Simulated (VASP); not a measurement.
# Valence-band splitting and top-band hole masses of BAs (F-43m) under biaxial (111) strain, r2SCAN with spin-orbit coupling on LDA cells

In a p-channel device, the current depends on how easily holes move in the plane of the film, and strain is a common way to change this. Boron arsenide is of interest because it conducts heat very well and has mobile carriers of both signs. The question is how strain in the (111) plane splits its top valence bands, and what happens to the mass of the uppermost one. The levels are computed with r2SCAN and spin-orbit coupling on cells relaxed with LDA. They are given as depths below the highest valence level at the zone centre, and strain is counted from the relaxed LDA cell, with tension positive.

## Method

The start is a typed prototype cell. The crystal was relaxed with LDA. Equal strain is imposed in the (111) plane; the strain along the normal is adjusted until the normal stress vanishes, and the atoms are relaxed with LDA. VASP 6.6.1, plane waves with PAW, cutoff 480 eV, no spin polarisation. Band edges are single points at r2SCAN with spin-orbit coupling on these cells, k mesh 9×9×9, read on short lines of k points at the zone centre and through the valleys; energies are counted from the valence-band top at the zone centre. Each level is the mean of a Kramers pair; masses are fitted within 0.05 1/Å of the zone centre and are rough where two bands nearly touch. All levels use the PAW data sets made with LDA.

Notes on method and selection:

- Runs that did not converge, have known faults or may not be shown are not listed, and runs on Ansatz's PAW sets soft_1 and soft_2 are kept to separate tables.

Columns:

- strain (%): strain in the plane (tension positive).
- second level (eV): second valence level below the top at Γ.
- third level (eV): third valence level below the top at Γ.
- mass, normal (mₑ): mass of the top hole band along the normal.
- mass, plane (mₑ): mass of the top hole band in the plane.

## Numbers

| member | sign of the strain | strain (%) | second level (eV) | third level (eV) | mass, normal (mₑ) | mass, plane (mₑ) |
| --- | --- | --- | --- | --- | --- | --- |
| −2 % | compression | −2.0 | 0.1013 | 0.388 | 0.536 | 0.172 |
| −1.5 % | compression | −1.5 | 0.0866 | 0.322 | 0.539 | 0.172 |
| −1 % | compression | −1.0 | 0.0653 | 0.273 | 0.528 | 0.170 |
| −0.5 % | compression | −0.5 | 0.0359 | 0.238 | 0.531 | 0.170 |
| 0 % | compression | 0.0 | 0.0000 | 0.215 | 0.523 | 0.443 |
| 0 % | tension | 0.0 | 0.0000 | 0.215 | 0.523 | 0.443 |
| +0.5 % | tension | 0.5 | 0.0389 | 0.239 | 0.111 | 0.352 |
| +1 % | tension | 1.0 | ? | ? | ? | ? |
| +1.5 % | tension | 1.5 | 0.1146 | 0.299 | 0.124 | 0.372 |
| +2 % | tension | 2.0 | 0.1487 | 0.329 | 0.125 | 0.369 |

Cells marked ? are withheld until the estimate has been made.

Least-squares fits to the members shown, with x = strain (%); R² and errors in the fitted variable (y, or ln y where the fit is in ln y):

| y | sign of the strain | members | fit | R² | rms residual | leave-one-out rms | the same for the mean of the others |
| --- | --- | --- | --- | --- | --- | --- | --- |
| third level (eV) | compression | 5 | y = 0.2012 − 0.08600 x | 0.96 | 0.012 | 0.025 | 0.077 |
| third level (eV) | tension | 4 | y = 0.2129 + 0.05760 x | 1.00 | 0.0018 | 0.0039 | 0.061 |
| second level (eV) | compression | 5 | y = 0.007160 − 0.05066 x | 0.97 | 0.0060 | 0.012 | 0.045 |
| second level (eV) | tension | 4 | y = 9.300×10⁻⁴ + 0.07462 x | 1.00 | 0.0013 | 0.0029 | 0.079 |

## Mechanism

Without strain the two upper levels coincide, and the third lies 0.215 eV lower through spin-orbit coupling. Strain of either sign separates the upper pair, by 0.1013 eV at −2 % and 0.1487 eV at +2 %.

The masses show that the order of the bands reverses. At −1.5 % the top band has a mass of 0.539 mₑ along the normal and 0.172 mₑ in the plane; at +1.5 % the values are 0.124 and 0.372 mₑ. The in-plane mass is thus 0.372 / 0.172 = 2.2 times larger under tension, so compression favours light in-plane holes.

A bonding argument fits this order. In-plane compression tilts the inclined bonds towards the normal, which should stabilise the p orbital along the normal and leave the in-plane p orbitals on top. These overlap only weakly along the normal, hence the heavy mass there. Tension raises the normal p orbital, which disperses strongly along its own axis.

Spin-orbit coupling makes the splitting uneven. Let $D$ be the strain splitting of the p levels without it, and $\Delta$ = 0.215 eV. Under compression the two depths should add up to $\Delta + D$ and have the product $\tfrac{2}{3}\Delta D$. At −2 %, $D$ = 0.1013 + 0.388 − 0.215 = 0.2743 eV; the predicted product is 2/3 × 0.215 × 0.2743 = 0.0393 eV², and the levels give 0.1013 × 0.388 = 0.0393 eV². The second level is repelled upwards by the third, so its distance from the top grows ever more slowly. Under tension the repelled level is itself the top one, so the upper splitting grows faster than $D$; but $D$ grows less than in proportion to strain, and the two effects nearly cancel, leaving the splitting almost proportional to strain.

Under the larger tensions the true band maximum lies slightly off the zone centre, so the masses there describe the band near its edge only approximately.

## A prediction

Plain estimates from the members shown:

- +1 % (tension), fit at x = 1.0: 0.271 eV
- +1 % (tension), straight-line interpolation between +0.5 % and +1.5 %: w = (1.0 − 0.5) / (1.5 − 0.5) = 0.500, so 0.239 + 0.500 × (0.299 − 0.239) = 0.269 eV

The straight line between the two neighbours of +1 %, 0.269 eV, is the better start, because the fit over all tensions ignores the curvature near zero strain. The same p-level model supplies that curvature. Under tension the third level lies at $t = \sqrt{\Delta^2 + D^2 + \tfrac{2}{3}\Delta D}$, with $D = \Delta + 2s - t$ taken as a positive size and $s$ the depth of the second level.

The neighbours give $D$ = 0.215 + 2 × 0.0389 − 0.239 = 0.0538 eV at +0.5 % and 0.215 + 2 × 0.1146 − 0.299 = 0.1452 eV at +1.5 %. Per percent this is 0.0538 / 0.5 = 0.1076 and 0.1452 / 1.5 = 0.0968 eV, and the mean, (0.1076 + 0.0968) / 2 = 0.1022, is used at +1 %. The formula then gives (0.215² + 0.1022² + 2/3 × 0.215 × 0.1022)^0.5 = 0.2671 eV. At the neighbours it gives (0.215² + 0.0538² + 2/3 × 0.215 × 0.0538)^0.5 = 0.2384 eV and (0.215² + 0.1452² + 2/3 × 0.215 × 0.1452)^0.5 = 0.2969 eV, with a mean of (0.2384 + 0.2969) / 2 = 0.2677 eV. The curve sags by 0.0006 eV, so the estimate is 0.269 − 0.0006 = 0.268 eV.

As a trial, +0.5 % is predicted from 0, +1.5 and +2 %. The straight line from 0 to +1.5 % gives 0.215 + (0.299 − 0.215) / 3 = 0.243 eV. For the sag, the splitting per percent is extrapolated linearly from +1.5 and +2 %: the latter has (0.215 + 2 × 0.1487 − 0.329) / 2 = 0.0917 eV, so +0.5 % gets 0.0968 + 2 × (0.0968 − 0.0917) = 0.107 eV. The model sag is then 0.004 eV, and the result of 0.243 − 0.004 = 0.239 eV agrees with the table. The error bar of 0.001 eV covers the rounding of the levels and a small unevenness between separately relaxed cells.

**Committed estimate, +1 % (tension): third level = 0.268 ± 0.001 eV.**

## Check

| member | sign of the strain | strain (%) | second level (eV) | third level (eV) | mass, normal (mₑ) | mass, plane (mₑ) |
| --- | --- | --- | --- | --- | --- | --- |
| +1 % | tension | 1.0 | 0.0777 | 0.268 | 0.124 | 0.366 |

| member | estimate | third level (eV) | computed | estimate − computed | miss in error bars |
| --- | --- | --- | --- | --- | --- |
| +1 % (tension) | committed | 0.268 | 0.268 | 0.000 | 0.0 |
| +1 % (tension) | fit | 0.271 | 0.268 | +0.003 |  |
| +1 % (tension) | interpolation | 0.269 | 0.268 | +0.001 |  |

third level (eV) against strain (%):

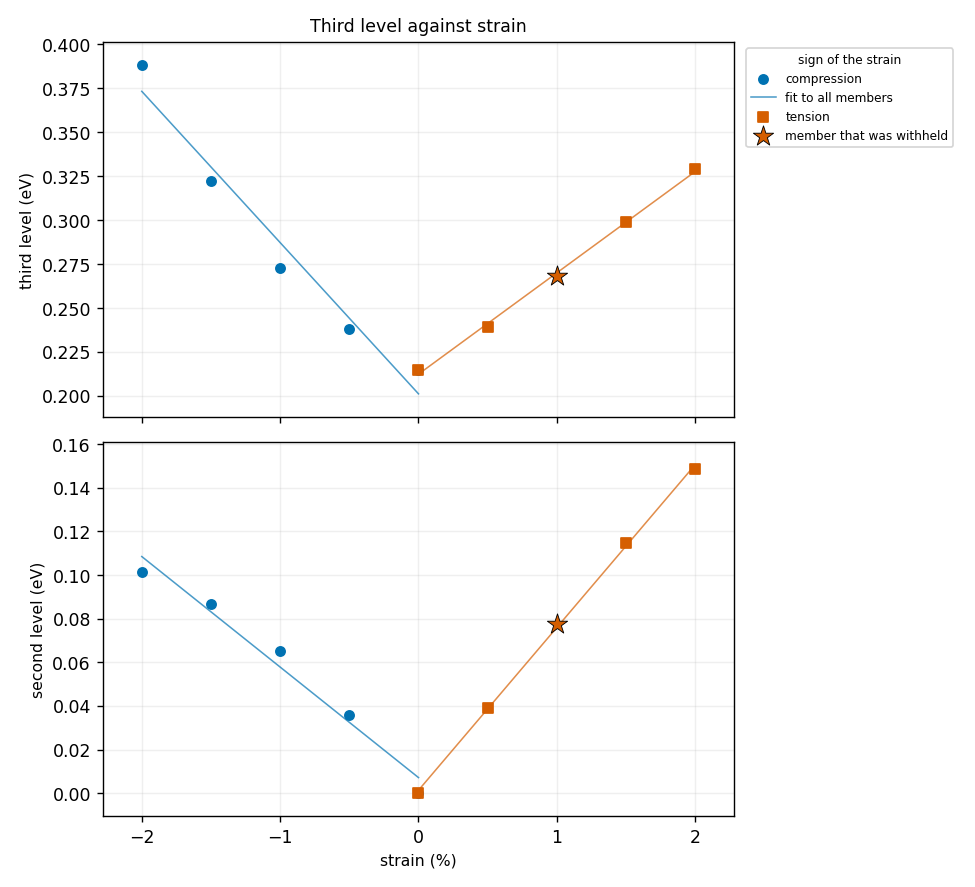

The estimate of 0.268 eV agrees with the computed level to the last printed digit and so lies inside its error bar. The fit over all tensions was 0.003 eV too high. Straight interpolation was only 0.001 eV too high, which is too close to the rounding to confirm the small curvature correction.

The second level gives a better check. Together with the third it yields a strain splitting of the p levels of 2 × 0.0777 + 0.215 − 0.268 = 0.1024 eV, where 0.1022 eV had been assumed. The masses of 0.124 mₑ along the normal and 0.366 mₑ in the plane also belong to the band order of the other tensions.

The model with a fixed spin-orbit splitting is less exact at larger tension. At +2 % the two levels give a strain splitting of 2 × 0.1487 + 0.215 − 0.329 = 0.1834 eV, from which the formula puts the third level at (0.215² + 0.1834² + 2/3 × 0.215 × 0.1834)^0.5 = 0.326 eV, against 0.329 eV computed. The estimate was little affected, because the model supplied only the curvature between two computed neighbours.

## Members off the line

Least-squares fits to the whole series, with x = strain (%); R² and errors in the fitted variable (y, or ln y where the fit is in ln y):

| y | sign of the strain | members | fit | R² | rms residual | leave-one-out rms | the same for the mean of the others |
| --- | --- | --- | --- | --- | --- | --- | --- |
| third level (eV) | compression | 5 | y = 0.2012 − 0.08600 x | 0.96 | 0.012 | 0.025 | 0.077 |
| third level (eV) | tension | 5 | y = 0.2124 + 0.05760 x | 1.00 | 0.0019 | 0.0038 | 0.051 |
| second level (eV) | compression | 5 | y = 0.007160 − 0.05066 x | 0.97 | 0.0060 | 0.012 | 0.045 |
| second level (eV) | tension | 5 | y = 0.001360 + 0.07462 x | 1.00 | 0.0014 | 0.0029 | 0.066 |

Largest departures from the fit to the whole series:

| member | sign of the strain | third level (eV) | fit | computed − fit | in rms residuals |
| --- | --- | --- | --- | --- | --- |
| 0 % | tension | 0.215 | 0.212 | +0.003 | 1.4 |
| −2 % | compression | 0.388 | 0.373 | +0.015 | 1.2 |
| −1 % | compression | 0.273 | 0.287 | −0.014 | 1.2 |
| +0.5 % | tension | 0.239 | 0.241 | −0.002 | 1.2 |

No single strain stands out; the departures show that the curves are bent. Under compression the third level is 0.015 eV deeper than the fit at −2 % and 0.014 eV shallower at −1 %. Successive half-percent steps from zero deepen it by 0.023, 0.035, 0.049 and 0.066 eV. Spin-orbit mixing explains the sign: at small strain the third level takes up only about a third of any increase in the p-level splitting, and this share grows with strain. The p-level splitting per percent also grows, from (0.0359 + 0.238 − 0.215) / 0.5 = 0.118 eV at −0.5 % to 0.2743 / 2 = 0.137 eV at −2 %, which adds to the bend.

Under tension the departures of +0.003 eV at zero strain and −0.002 eV at +0.5 % have the same origin. They are smaller because the p-level splitting per percent falls with tension, from 0.0538 / 0.5 = 0.108 eV at +0.5 % to 0.1834 / 2 = 0.092 eV at +2 %, and this offsets much of the bend.

## Rules of thumb and their limits

Between −2 and +2 %, strain of either sign splits the upper pair. From 0.5 % on, the top band is light in the plane under compression and heavier there under tension.

Interpolation between tensions 1 % apart gave the third level at +1 % to 0.001 eV. Under compression the same spacing gives (0.238 + 0.322) / 2 = 0.280 eV at −1 %, which is 0.007 eV too deep, so the curvature has to be included.

For a p-channel, 1 % compression gives an in-plane mass of 0.170 mₑ and a splitting of 0.0653 eV. With a thermal energy of roughly 0.026 eV at room temperature this is 0.0653 / 0.026 = 2.5 thermal energies, a Boltzmann factor of about 0.08 for the second band before its density of states is counted.

r2SCAN usually makes band gaps too small, but this error mainly shifts the conduction band relative to the valence band and should largely cancel in splittings within the valence band.
